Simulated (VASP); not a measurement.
# Biaxial (001) strain of rocksalt TaN with PBEsol: normal strain, in-plane stress, strain energy and the range of linear elasticity

Should the stress in an epitaxial (001) film of rocksalt TaN be derived from its lattice strain with constant elastic moduli, or is a nonlinear term needed? The choice matters because an error in the stress passes directly into estimates of film curvature and stored energy. Nine in-plane strains between −2 % and +2 % are considered, each with the normal stress relaxed to zero. Strains are counted from the crystal relaxed with PBEsol, and tension is positive. The results test linear elasticity within this level of theory; no measured values are shown for comparison.

## Systems and settings

The start is a typed prototype cell. The crystal was relaxed with PBEsol. Equal strain is imposed in the (001) plane; the strain along the normal is adjusted until the normal stress vanishes, and the atoms are relaxed with PBEsol. VASP 6.6.1, plane waves with PAW, cutoff 600 eV, no spin polarisation, no spin-orbit coupling, k mesh 20×20×20, static lattice. The same in all rows: band gap on the k mesh at PBEsol: 0.000 eV.

Notes on method and selection:

- Runs that did not converge, have known faults or may not be shown are not listed, and runs on Ansatz's PAW sets soft_1 and soft_2 are kept to separate tables.

Columns:

- strain (%): strain in the plane (tension positive).
- normal strain (%): strain along the normal.
- stress (GPa): in-plane stress, tension positive.
- strain energy (meV/atom): energy per atom above the relaxed crystal.

## Results

| member | strain (%) | normal strain (%) | stress (GPa) | strain energy (meV/atom) |
| --- | --- | --- | --- | --- |
| −2 % | −2.0 | 0.779 | −20.01 | 25.89 |
| −1.5 % | −1.5 | 0.549 | −14.67 | 14.51 |
| −1 % | −1.0 | 0.355 | −9.50 | 6.51 |
| −0.5 % | −0.5 | 0.175 | −4.60 | 1.77 |
| 0 % | 0.0 | 0.000 | 0.00 | 0.13 |
| +0.5 % | 0.5 | −0.179 | 4.26 | 1.42 |
| +1 % | 1.0 | −0.364 | 8.19 | 5.41 |
| +1.5 % | 1.5 | −0.542 | 11.89 | 11.89 |
| +2 % | 2.0 | −0.705 | 15.41 | 20.78 |

normal strain (%) against strain (%):

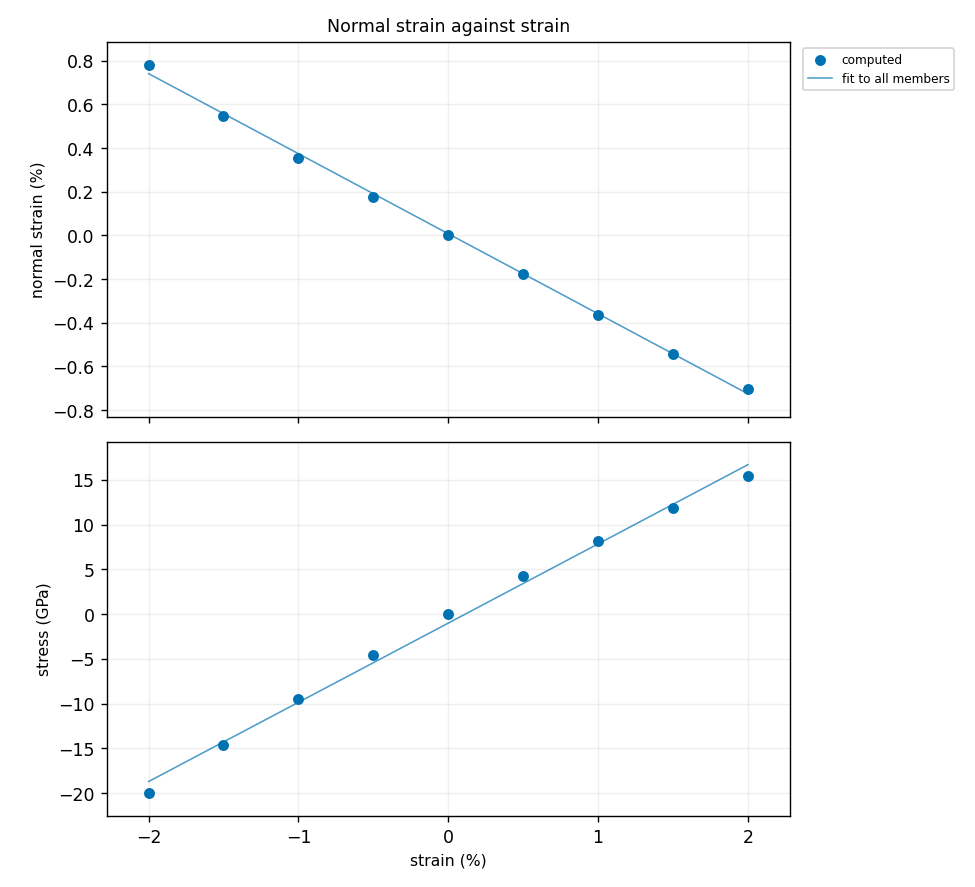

Least-squares fits to the whole series, with x = strain (%); R² and errors in the fitted variable (y, or ln y where the fit is in ln y):

| y | members | fit | R² | rms residual | leave-one-out rms | the same for the mean of the others |
| --- | --- | --- | --- | --- | --- | --- |
| normal strain (%) | 9 | y = 0.007556 − 0.3667 x | 1.00 | 0.017 | 0.026 | 0.53 |
| stress (GPa) | 9 | y = −1.003 + 8.853 x | 0.99 | 0.84 | 1.2 | 13 |

## Mechanism

From −2 % to +2 % the normal strain falls from 0.779 to −0.705 %, while the in-plane stress rises from −20.01 to 15.41 GPa. The stress gained per half percent of strain shrinks at every step, from 5.34 GPa at the compressed end to 3.52 GPa at the stretched end. The crystal therefore stiffens under compression and softens under tension.

A model with three parameters follows from four assumptions.

First, the normal stress of a cubic crystal is linear in the strains. With x the in-plane strain and e the normal strain, zero normal stress requires C₁₁e + 2C₁₂x = 0. Hence e = −r x, with r = 2C₁₂/C₁₁.

Second, the in-plane stress is linear at small strain: σ = (C₁₁ + C₁₂)x + C₁₂e. Inserting e gives σ = M x, with the biaxial modulus M = C₁₁ + C₁₂ − 2C₁₂²/C₁₁.

Third, the leading anharmonic correction is quadratic, so that σ = M x + N x². A negative N is expected because the repulsion between neighbouring ions steepens as bonds shorten, whereas the restoring force weakens as they lengthen.

Fourth, the stress is the derivative of the energy, and the change of volume during straining is neglected in the work. Two in-plane directions contribute 2σ dx per unit volume. Integration gives the energy per atom above the unstrained run, u = K[x² + 2N x³/(3M)], where K is M times the volume per atom. K is thus a conversion factor rather than a further elastic parameter, though it is fitted to the energies below. The table counts the energy from the final energy of the cell relaxation, which lies slightly below that of the separate unstrained run; hence the 0.13 meV/atom at zero strain.

The small normal response has a simple reading. The Ta–N bonds lie along the cube axes, so in-plane strain changes the lengths of bonds perpendicular to the normal and acts only indirectly on those along it. This corresponds to C₁₂ being much smaller than C₁₁.

The straight-line fit to the stress has an intercept of −1.003 GPa. This is not a residual stress, since the unstrained row has 0.00 GPa; it arises from forcing a line through curved data.

## Testing the model

The model is fixed on the members −1 % and +1 %, with x in %:

- r = (0.355 + 0.364) / 2 = 0.3595
- M = (8.19 + 9.50) / 2 = 8.845 GPa per %, or 8.845 × 100 = 884.5 GPa
- N = (8.19 − 9.50) / 2 = −0.655 GPa per %²
- K = (6.51 + 5.41) / 2 − 0.13 = 5.83 meV/atom per %²

With C₁₂/C₁₁ = 0.3595 / 2 = 0.180, C₁₁ = 884.5 / (1 + 0.180 − 2 × 0.180²) = 793 GPa and C₁₂ = 0.180 × 793 = 143 GPa. The bulk modulus is (793 + 2 × 143) / 3 = 360 GPa. C₄₄ does not follow, because no shear of the cube axes is imposed.

Stress in GPa:

- −2 %: −8.845 × 2 − 0.655 × 4 = −20.31; table −20.01
- −0.5 %: −8.845 × 0.5 − 0.655 × 0.5 × 0.5 = −4.59; table −4.60
- +1.5 %: 8.845 × 1.5 − 0.655 × 1.5 × 1.5 = 11.79; table 11.89
- +2 %: 8.845 × 2 − 0.655 × 4 = 15.07; table 15.41

Normal strain in %:

- −2 %: 0.3595 × 2 = 0.719; table 0.779
- +2 %: −0.3595 × 2 = −0.719; table −0.705

The cubic coefficient of the energy is 5.83 × 2 × (−0.655) / (3 × 8.845) = −0.288 meV/atom per %³. Energies in meV/atom, with the 0.13 of the unstrained row subtracted from the table:

- −2 %: 5.83 × 4 + 0.288 × 8 = 25.62; table 25.76
- +2 %: 5.83 × 4 − 0.288 × 8 = 21.02; table 20.65

Over the six strained members not used to fix the model, the rms misses are about 0.19 GPa, 0.026 % normal strain and 0.27 meV/atom. The scatter of these six about their mean is roughly 13 GPa, 0.5 % and 9 meV/atom.

## Residuals

Largest departures from the fit to the whole series:

| member | normal strain (%) | fit | computed − fit | in rms residuals |
| --- | --- | --- | --- | --- |
| −2 % | 0.779 | 0.741 | +0.038 | 2.2 |
| +2 % | −0.705 | −0.726 | +0.021 | 1.2 |
| −1 % | 0.355 | 0.374 | −0.019 | 1.1 |
| −0.5 % | 0.175 | 0.191 | −0.016 | 0.9 |

At ±2 % the model stress is too low algebraically by 0.30 GPa in compression and 0.34 GPa in tension. The shared sign points to the truncation after the quadratic term: N derived from this pair is (15.41 − 20.01) / 8 = −0.575, weaker than the −0.655 used.

The normal strain at −2 % exceeds the model by 0.060 %, so a constant r fails there. A single quadratic term would not repair it, because the mean of the paired normal strains is slightly negative at ±1 % and positive at ±2 %. Higher-order elasticity or a strain-dependent Fermi surface are possible causes.

The energy is more lopsided than the stress implies. Between −0.5 % and +0.5 % it differs by 0.35 meV/atom, against 0.07 in the model. The missing part, 0.35 − 0.07 = 0.28 meV/atom, corresponds to a stress offset of 0.28 × 8.845 / (2 × 5.83) = 0.21 GPa. Here the assumption that stress is the exact derivative of energy fails, probably through Pulay stress from the finite plane-wave basis: at fixed cutoff a larger cell holds more plane waves, which lowers the energy in tension relative to compression.

## Closing remarks

Constant moduli give the stress to about 4 % at ±0.5 % strain and 7–8 % at ±1 %. At ±2 % they overestimate the tensile stress by 15 % and underestimate the compressive stress by 12 %, so the quadratic term belongs in any estimate at that strain.

The main omission is structural. Rocksalt is not the stable phase of TaN, and the series does not address transformation to another structure. The one-formula-unit cell also excludes distortions of longer period, so the moduli describe the ideal rocksalt lattice.
